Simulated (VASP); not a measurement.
# Normal strain, stress and strain energy of rocksalt TiC under biaxial (111) strain at PBEsol level

A hard TiC coating grown with its (111) planes parallel to a substrate takes up misfit strain in the plane and is free to change its thickness. To turn a measured lattice strain into a film stress, I need the elastic response for exactly this geometry, and I need to know at what strain a constant modulus stops being good enough. I therefore follow the normal strain, the in-plane stress and the energy per atom from −2 % to +2 % in-plane strain. Strains and energies are counted from the relaxed PBEsol crystal, and tension is positive. The results describe a perfect static crystal with no substrate, and no measured values are compared here.

## How the numbers were made

The start is a typed prototype cell. The crystal was relaxed with PBEsol. Equal strain is imposed in the (111) plane; the strain along the normal is adjusted until the normal stress vanishes, and the atoms are relaxed with PBEsol. VASP 6.6.1, plane waves with PAW, cutoff 600 eV, no spin polarisation, no spin-orbit coupling, k mesh 20×20×20, static lattice. The same in all rows: band gap on the k mesh at PBEsol: 0.000 eV.

Notes on method and selection:

- Runs that did not converge, have known faults or may not be shown are not listed, and runs on Ansatz's PAW sets soft_1 and soft_2 are kept to separate tables.

Columns:

- strain (%): strain in the plane (tension positive).
- normal strain (%): strain along the normal.
- stress (GPa): in-plane stress, tension positive.
- strain energy (meV/atom): energy per atom above the relaxed crystal.

Input lines of one member:

```
PREC = Accurate
ENCUT = 600
EDIFF = 1E-07
NELM = 120
ISMEAR = 1
SIGMA = 0.15
LREAL = .FALSE.
ALGO = Normal
GGA = PS
NBANDS = 14
LASPH = .TRUE.
LORBIT = 11
KPAR = 2
IBRION = 1
NSW = 25
```

Command (options for logging and memory left out): `mpirun -np 2 vasp_std`

## Computed values

| member | strain (%) | normal strain (%) | stress (GPa) | strain energy (meV/atom) |
| --- | --- | --- | --- | --- |
| −2 % | −2.0 | 1.219 | −11.94 | 14.67 |
| −1.5 % | −1.5 | 0.914 | −8.78 | 8.23 |
| −1 % | −1.0 | 0.607 | −5.75 | 3.68 |
| −0.5 % | −0.5 | 0.300 | −2.83 | 0.96 |
| 0 % | 0.0 | 0.000 | 0.01 | 0.00 |
| +0.5 % | 0.5 | −0.303 | 2.74 | 0.77 |
| +1 % | 1.0 | −0.605 | 5.38 | 3.20 |
| +1.5 % | 1.5 | −0.908 | 7.93 | 7.26 |
| +2 % | 2.0 | −1.214 | 10.37 | 12.89 |

normal strain (%) against strain (%):

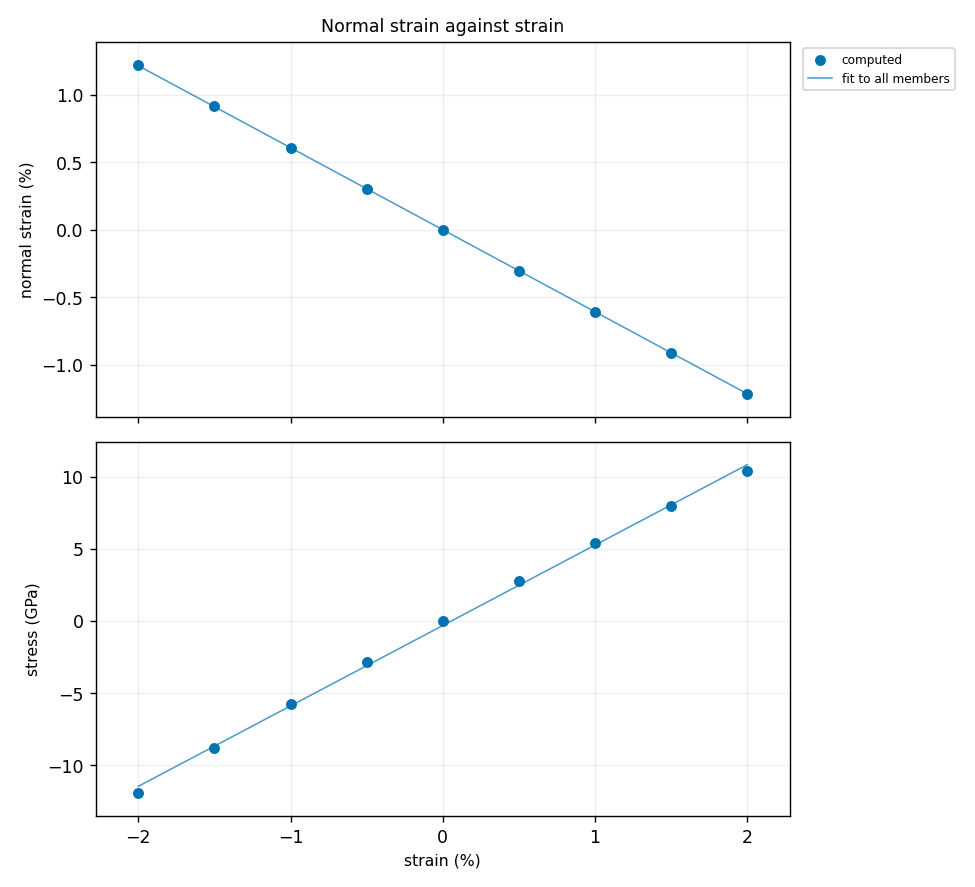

Least-squares fits to the whole series, with x = strain (%); R² and errors in the fitted variable (y, or ln y where the fit is in ln y):

| y | members | fit | R² | rms residual | leave-one-out rms | the same for the mean of the others |
| --- | --- | --- | --- | --- | --- | --- |
| normal strain (%) | 9 | y = 0.001111 − 0.6075 x | 1.00 | 0.0022 | 0.0029 | 0.88 |
| stress (GPa) | 9 | y = −0.3189 + 5.573 x | 1.00 | 0.29 | 0.42 | 8.1 |

## Mechanism

Tension in the plane thins the crystal by about 0.61 % for each 1 % of strain, and this ratio hardly changes along the series. The stress rises steadily but bends: it reaches 10.37 GPa at +2 % and −11.94 GPa at −2 %. The energy is close to a parabola, somewhat steeper on the compressive side.

For the simplest model I assume that stress is proportional to strain, that the crystal is cubic before straining, and that the normal stress is zero. Symmetry keeps both atoms on inversion centres, so no internal displacement enters. I call the in-plane strain e, the normal strain n and the in-plane stress σ.

1. The volume changes by the fraction 2e + n. The mean stress is 2σ/3, because two of the three directions carry σ. The bulk modulus B links them: 2σ/3 = B(2e + n).

2. The rest of the deformation is a shear of the cubic axes, which only C₄₄ resists: σ = 2C₄₄(e − n).

3. I write n = −r e and σ = M e, where M is the biaxial modulus. The two equations then give B = 2M/[3(2 − r)] and C₄₄ = M/[2(1 + r)].

4. Eliminating M gives r = (6B − 4C₄₄)/(3B + 4C₄₄), so the thinning depends only on the ratio C₄₄/B.

5. Both in-plane directions do work, each σe/2 per volume. With V the volume per atom, the energy per atom is E = V M e² = k e².

The three parameters are B, C₄₄ and V. In bond terms, all six Ti–C bonds of an atom make the same angle with the normal, so they change length equally, by the fraction (2e + n)/3. B measures the resistance to this stretch, and C₄₄ the resistance to bending the bond angles away from 90°. C₁₁ and C₁₂ enter only as C₁₁ + 2C₁₂ = 3B, so this strain cannot give them separately.

## The model against the table

I fix the model on the −1 % and +1 % members, because averaging the two signs removes the curvature to lowest order.

- r = (0.607 + 0.605)/2 = 0.606
- M = (5.75 + 5.38)/2 = 5.565 GPa per %, or 5.565 × 100 = 556.5 GPa
- k = (3.68 + 3.20)/2 = 3.44 meV/atom per %²

The moduli follow from step 3, with 2 − 0.606 = 1.394 and 1 + 0.606 = 1.606:

- B = 2 × 556.5 / (3 × 1.394) = 266 GPa
- C₄₄ = 556.5 / (2 × 1.606) = 173 GPa

With 1 eV/Å³ = 160.2 GPa and k = 3.44 / 1000 = 0.00344 eV/atom per %², the volume is V = 0.00344 × 160.2 / (556.5 × 0.01²) = 9.90 Å³ per atom. This agrees with the relaxed cell, so the curvature of the energy and the slope of the stress tell the same story.

Now I work out four other members, with the table value in brackets.

**+0.5 %**
- normal strain: −0.606 × 0.5 = −0.303 % (−0.303)
- stress: 5.565 × 0.5 = 2.78 GPa (2.74)
- energy: 3.44 × 0.5 × 0.5 = 0.86 meV/atom (0.77)

**+1.5 %**
- normal strain: −0.606 × 1.5 = −0.909 % (−0.908)
- stress: 5.565 × 1.5 = 8.35 GPa (7.93)
- energy: 3.44 × 1.5 × 1.5 = 7.74 meV/atom (7.26)

**+2 %**
- normal strain: −0.606 × 2 = −1.212 % (−1.214)
- stress: 5.565 × 2 = 11.13 GPa (10.37)
- energy: 3.44 × 4 = 13.76 meV/atom (12.89)

**−2 %**
- normal strain: −0.606 × (−2) = 1.212 % (1.219)
- stress: 5.565 × (−2) = −11.13 GPa (−11.94)
- energy: 3.44 × 4 = 13.76 meV/atom (14.67)

The normal strain is reproduced to within 0.007 %, while the stress and the energy drift away from the model.

## Outliers

Largest departures from the fit to the whole series:

| member | normal strain (%) | fit | computed − fit | in rms residuals |
| --- | --- | --- | --- | --- |
| −0.5 % | 0.300 | 0.305 | −0.005 | 2.2 |
| −2 % | 1.219 | 1.216 | +0.003 | 1.3 |
| +1.5 % | −0.908 | −0.910 | +0.002 | 1.0 |
| −1.5 % | 0.914 | 0.912 | +0.002 | 0.7 |

The normal strains all lie within about 0.005 % of their line, too little to matter for a film. The stress departs from the model's straight line in the same direction at both ends: computed minus model is 10.37 − 11.13 = −0.76 GPa at +2 % and −11.94 + 11.13 = −0.81 GPa at −2 %, about 7 %. The assumption that fails is that of constant moduli. Steps 1 and 2 can be applied to each end row by itself, using magnitudes; as fractions the normal strains are 1.214 / 100 = 0.01214 at +2 % and 1.219 / 100 = 0.01219 at −2 %. At +2 %, 2e + n is 2 × 0.02 − 0.01214 = 0.02786 and e − n is 0.02 + 0.01214 = 0.03214, so B = 2 × 10.37 / (3 × 0.02786) = 248 GPa and C₄₄ = 10.37 / (2 × 0.03214) = 161 GPa. At −2 %, the same sums are 2 × 0.02 − 0.01219 = 0.02781 and 0.02 + 0.01219 = 0.03219, so B = 2 × 11.94 / (3 × 0.02781) = 286 GPa and C₄₄ = 11.94 / (2 × 0.03219) = 185 GPa. Longer bonds are softer, and both moduli change by nearly the same share, as step 4 requires when r is nearly constant. The intercept of −0.3189 GPa in the printed fit comes from this curvature and is no residual stress.

The energy shows a second, smaller fault. The model is too high by 12 % at +0.5 % but by only 7 % at +2 %, whereas softening alone would matter less at small strain. Half the difference between compression and tension is 0.24 meV/atom at 1 % and 0.89 at 2 %. A linear plus a cubic term reproduces both with a linear part of −0.17 meV/atom per %, equivalent, after division by 2V, to a stress of about −0.14 GPa, although the unstrained row has 0.01 GPa. The probable cause is the finite plane-wave basis: at fixed cutoff a larger cell holds more plane waves, which lowers its energy slightly.

## Closing remarks

The thinning ratio of 0.61 serves over the whole range from −2 % to +2 %. A constant biaxial modulus of 556.5 GPa gives the stress to within about 4 % up to 1 % strain of either sign, and to within about 8 % at 2 %. Beyond 1 % I would let the modulus fall under tension and rise under compression.

Two effects are left out here. Real titanium carbide usually lacks some carbon, and the vacancies lower the moduli, so the stress in a carbon-poor film would be overestimated. Flaws also limit the tension that a real film can bear, so the stress computed at +2 % is the response of a perfect crystal and not a strength.

[Logs are printed without paths, hosts, clocks, repeated set-up lines and the standing remarks that a program may print on its own settings, such as how far it seeks lower states.]
